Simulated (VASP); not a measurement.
# Zone-centre gap, electron mass and conduction valleys of CdTe under biaxial (111) strain at TB-mBJ with spin-orbit coupling

Squeezing CdTe in the (111) plane lowers its zone-centre gap, and so does stretching it. A response to volume alone would change sign with the strain, so something else must act as well. The matter is of practical weight because a (111)-oriented CdTe film grown on a mismatched substrate is strained in just this way, and its absorption edge and electron transport follow the gap and the mass. The quantities are the lowest conduction levels at Γ, along Γ–X and at L, all counted from the valence-band top at Γ, and the electron mass at Γ along the normal and in the plane. Strain is measured from the LDA-relaxed cubic crystal, with tension positive.

## Set-up

The start is a typed prototype cell. The crystal was relaxed with LDA. Equal strain is imposed in the (111) plane; the strain along the normal is adjusted until the normal stress vanishes, and the atoms are relaxed with LDA. VASP 6.6.1, plane waves with PAW, cutoff 450 eV, no spin polarisation. Band edges are single points at TB-mBJ with spin-orbit coupling on these cells, k mesh 7×7×7, read on short lines of k points at the zone centre and through the valleys; energies are counted from the valence-band top at the zone centre. Masses are fitted within 0.05 1/Å of the zone centre. All levels use the PAW data sets made with LDA.

Notes on method and selection:

- A valley's energy from the valence-band top holds the shift of that top as well as the shift of the valley.
- The TB-mBJ parameter c is fixed anew from the density of each cell, so it changes along the series.
- Runs that did not converge, have known faults or may not be shown are not listed, and runs on Ansatz's PAW sets soft_1 and soft_2 are kept to separate tables.

Columns:

- strain (%): strain in the plane (tension positive).
- Γ level (eV): lowest conduction level at Γ.
- Δ valley (eV): lowest conduction level along Γ–X.
- L valley (eV): lowest conduction level at the L points.
- mass, normal (mₑ): electron mass at Γ along the normal.
- mass, plane (mₑ): electron mass at Γ in the plane.

Input lines of one member:

```
PREC = Accurate
ENCUT = 450
EDIFF = 1E-06
NELM = 150
ISMEAR = 0
SIGMA = 0.02
LREAL = .FALSE.
ALGO = Normal
METAGGA = MBJ
LASPH = .TRUE.
LNONCOLLINEAR = .TRUE.
NBANDS = 28
GGA_COMPAT = .FALSE.
LSORBIT = .TRUE.
KPAR = 2
```

Command (options for logging and memory left out): `mpirun -np 2 vasp_ncl`

## Data

| member | sign of the strain | strain (%) | Γ level (eV) | Δ valley (eV) | L valley (eV) | mass, normal (mₑ) | mass, plane (mₑ) |
| --- | --- | --- | --- | --- | --- | --- | --- |
| −2 % | compression | −2.0 | 1.599 | 2.709 | 2.237 | 0.123 | 0.149 |
| −1.5 % | compression | −1.5 | 1.616 | 2.786 | 2.280 | 0.127 | 0.146 |
| −1 % | compression | −1.0 | 1.628 | 2.856 | 2.321 | 0.131 | 0.143 |
| −0.5 % | compression | −0.5 | 1.635 | 2.908 | 2.359 | 0.135 | 0.141 |
| 0 % | compression | 0.0 | 1.640 | 2.945 | 2.396 | 0.139 | 0.139 |
| 0 % | tension | 0.0 | 1.640 | 2.945 | 2.396 | 0.139 | 0.139 |
| +0.5 % | tension | 0.5 | 1.605 | 2.932 | 2.315 | 0.141 | 0.136 |
| +1 % | tension | 1.0 | 1.569 | 2.905 | 2.234 | 0.145 | 0.134 |
| +1.5 % | tension | 1.5 | 1.533 | 2.864 | 2.156 | 0.148 | 0.133 |
| +2 % | tension | 2.0 | 1.496 | 2.820 | 2.083 | 0.149 | 0.131 |

Γ level (eV) against strain (%):

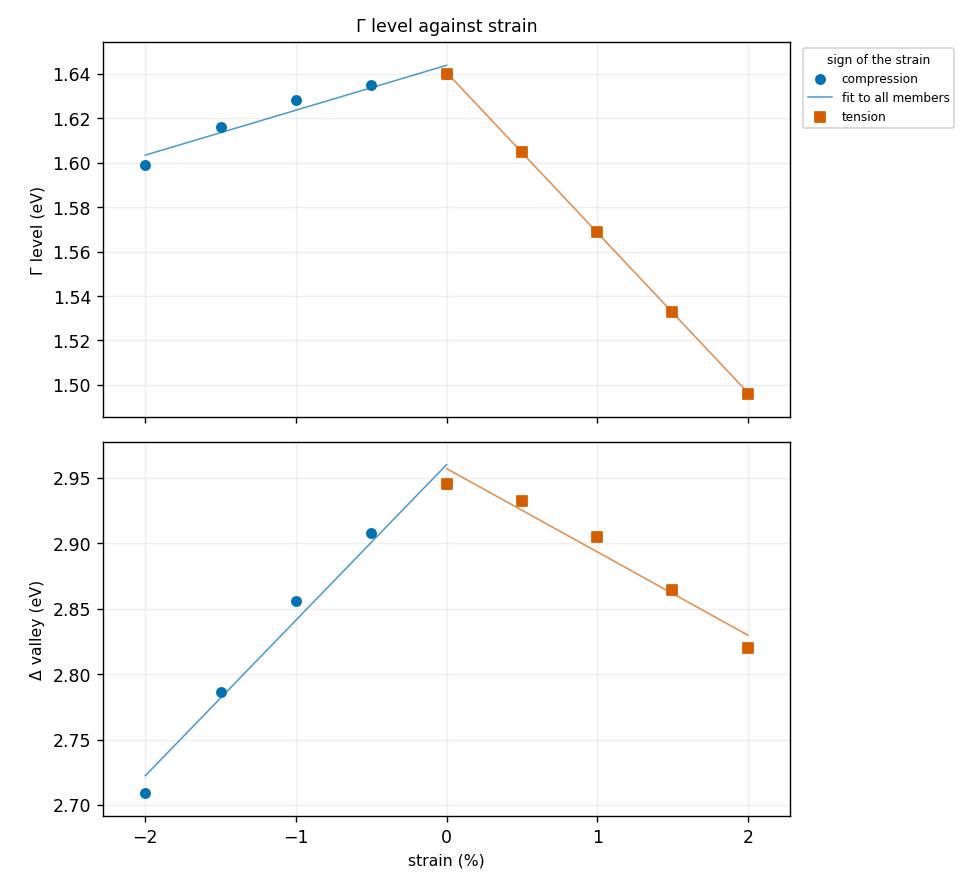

Least-squares fits to the whole series, with x = strain (%); R² and errors in the fitted variable (y, or ln y where the fit is in ln y):

| y | sign of the strain | members | fit | R² | rms residual | leave-one-out rms | the same for the mean of the others |
| --- | --- | --- | --- | --- | --- | --- | --- |
| Γ level (eV) | compression | 5 | y = 1.6438 + 0.020200 x | 0.94 | 0.0035 | 0.0072 | 0.018 |
| Γ level (eV) | tension | 5 | y = 1.6406 − 0.072000 x | 1.00 | 4.9×10⁻⁴ | 0.0010 | 0.064 |
| Δ valley (eV) | compression | 5 | y = 2.960 + 0.1188 x | 0.98 | 0.012 | 0.024 | 0.11 |
| Δ valley (eV) | tension | 5 | y = 2.957 − 0.06360 x | 0.96 | 0.0092 | 0.019 | 0.057 |

## The trend and its physics

From the unstrained 1.640 eV the gap at Γ falls to 1.599 eV at −2 % and to 1.496 eV at +2 %. From −2 % to +2 % the mass along the normal rises from 0.123 to 0.149 mₑ, while the mass in the plane falls from 0.149 to 0.131 mₑ. The L valley is the nearest competitor in every cell. It lies 2.396 − 1.640 = 0.756 eV above the Γ level without strain and 2.083 − 1.496 = 0.587 eV above it at +2 %, the closest approach in the table. It comes closer under either sign of strain because strain in the (111) plane splits the four L valleys into one along the normal and three others, and the lowest is the one listed. The Δ valley stays at least 2.709 − 1.599 = 1.110 eV above the Γ level.

A model for the gap needs three steps, with $\varepsilon$ the in-plane strain in per cent.

1. The normal contracts under tension, but not enough to keep the volume constant. The volume therefore grows with $\varepsilon$, and the antibonding, s-like conduction level comes down towards the valence band. To first order this changes the gap by $h\varepsilon$, with $h<0$.

2. The strain also makes the crystal trigonal. The fourfold valence top splits into two twofold levels, at $+s\varepsilon$ and $-s\varepsilon$ about their mean. Mixing with the split-off band is neglected.

3. The gap is counted from the upper of the two levels, which lies $s|\varepsilon|$ above the mean for either sign of strain. Hence

$$\Delta E = h\varepsilon - s|\varepsilon| .$$

The slope is $h+s$ under compression and $h-s$ under tension. If $s$ exceeds $|h|$, the gap falls both ways, faster under tension.

The Δ column supports step 3. The distance from the Γ level to the Δ valley does not contain the valence top, and it grows steadily through zero strain: 2.908 − 1.635 = 1.273 eV at −0.5 %, 2.945 − 1.640 = 1.305 eV at 0 % and 2.932 − 1.605 = 1.327 eV at +0.5 %. Over the same two steps the gap itself first rises, by 1.640 − 1.635 = 0.005 eV, and then falls, by 1.640 − 1.605 = 0.035 eV. The abrupt change of slope thus belongs to the valence top.

## The model against the table

The unstrained gap, 1.640 eV, serves as the reference, and the members −1 % and +1 % fix the two parameters:

$h + s = 1.640 - 1.628 = 0.012$

$h - s = 1.569 - 1.640 = -0.071$

Half the sum and half the difference give

$h = (0.012 - 0.071)/2 = -0.0295$ eV per %

$s = (0.012 + 0.071)/2 = 0.0415$ eV per %

The splitting term is the larger, as a fall on both sides requires. The six other members then follow.

**−2 %:** $1.640 + 0.0295 \times 2 - 0.0415 \times 2 = 1.616$ eV; the table has 1.599 eV.

**−0.5 %:** $1.640 + 0.0295 \times 0.5 - 0.0415 \times 0.5 = 1.634$ eV; the table has 1.635 eV.

**+1.5 %:** $1.640 - 0.0295 \times 1.5 - 0.0415 \times 1.5 = 1.5335$ eV; the table has 1.533 eV.

**+2 %:** $1.640 - 0.0295 \times 2 - 0.0415 \times 2 = 1.498$ eV; the table has 1.496 eV.

**−1.5 %:** $1.640 + 0.0295 \times 1.5 - 0.0415 \times 1.5 = 1.622$ eV; the table has 1.616 eV.

**+0.5 %:** $1.640 - 0.0295 \times 0.5 - 0.0415 \times 0.5 = 1.6045$ eV; the table has 1.605 eV.

Over the six members not used to set the model, the rms miss is 0.007 eV, while their scatter about their own mean is roughly 0.05 eV. Most of that success lies on the tension side. For the three compressed members alone the miss is about 0.010 eV against a scatter of roughly 0.015 eV, a modest gain.

## Exceptions

Largest departures from the fit to the whole series:

| member | sign of the strain | Γ level (eV) | fit | computed − fit | in rms residuals |
| --- | --- | --- | --- | --- | --- |
| −2 % | compression | 1.599 | 1.603 | −0.004 | 1.3 |
| −1 % | compression | 1.628 | 1.624 | +0.004 | 1.3 |
| 0 % | tension | 1.640 | 1.641 | −0.001 | 1.2 |
| +2 % | tension | 1.496 | 1.497 | −0.001 | 1.2 |

The model fails mainly under strong compression, where the computed gap lies below it by 0.006 eV at −1.5 % and by 0.017 eV at −2 %. The assumption at fault is linearity: successive half-per-cent steps of compression lower the gap by 0.005, 0.007, 0.012 and 0.017 eV. LDA without spin-orbit coupling bends the same way in these cells, so neither the changing parameter $c$ nor spin-orbit coupling is needed to explain it.

Under tension the steps are nearly equal, which may be a cancellation. Mixing with the split-off band steepens the fall, whereas in LDA without spin-orbit coupling the fall flattens.

The masses contradict the simplest extension of the model. Under tension the upper valence level has more p character along the normal, and its closeness to the conduction level should make the normal mass the lighter one. At +2 % it is the heavier, 0.149 against 0.131 mₑ. A possible counter-effect is bond tilt: tension turns the three slanted bonds of each atom towards the plane, which weakens the s–p coupling along the normal and strengthens it in the plane.

## What to take away

Between 0 and +2 % the gap at Γ falls by about 0.072 eV per per cent of strain. Under compression a single slope is only a rough description. The conduction minimum stays at Γ throughout, but in all compressed cells and under the larger tensions the valence top lies slightly off Γ, so the smallest gap is marginally indirect.

Two omitted effects exceed the 0.041 eV spread of the compressed branch, though not the 0.144 eV of the whole table. Warming to room temperature lowers the gap by roughly 0.1 eV, and correcting the slightly too small LDA cell would lower it by a similar amount. TB-mBJ also tends to make electron masses too heavy, by some tens of per cent, so the direction of the mass changes deserves more trust than the absolute values.

[Logs are printed without paths, hosts, clocks, repeated set-up lines and the standing remarks that a program may print on its own settings, such as how far it seeks lower states.]
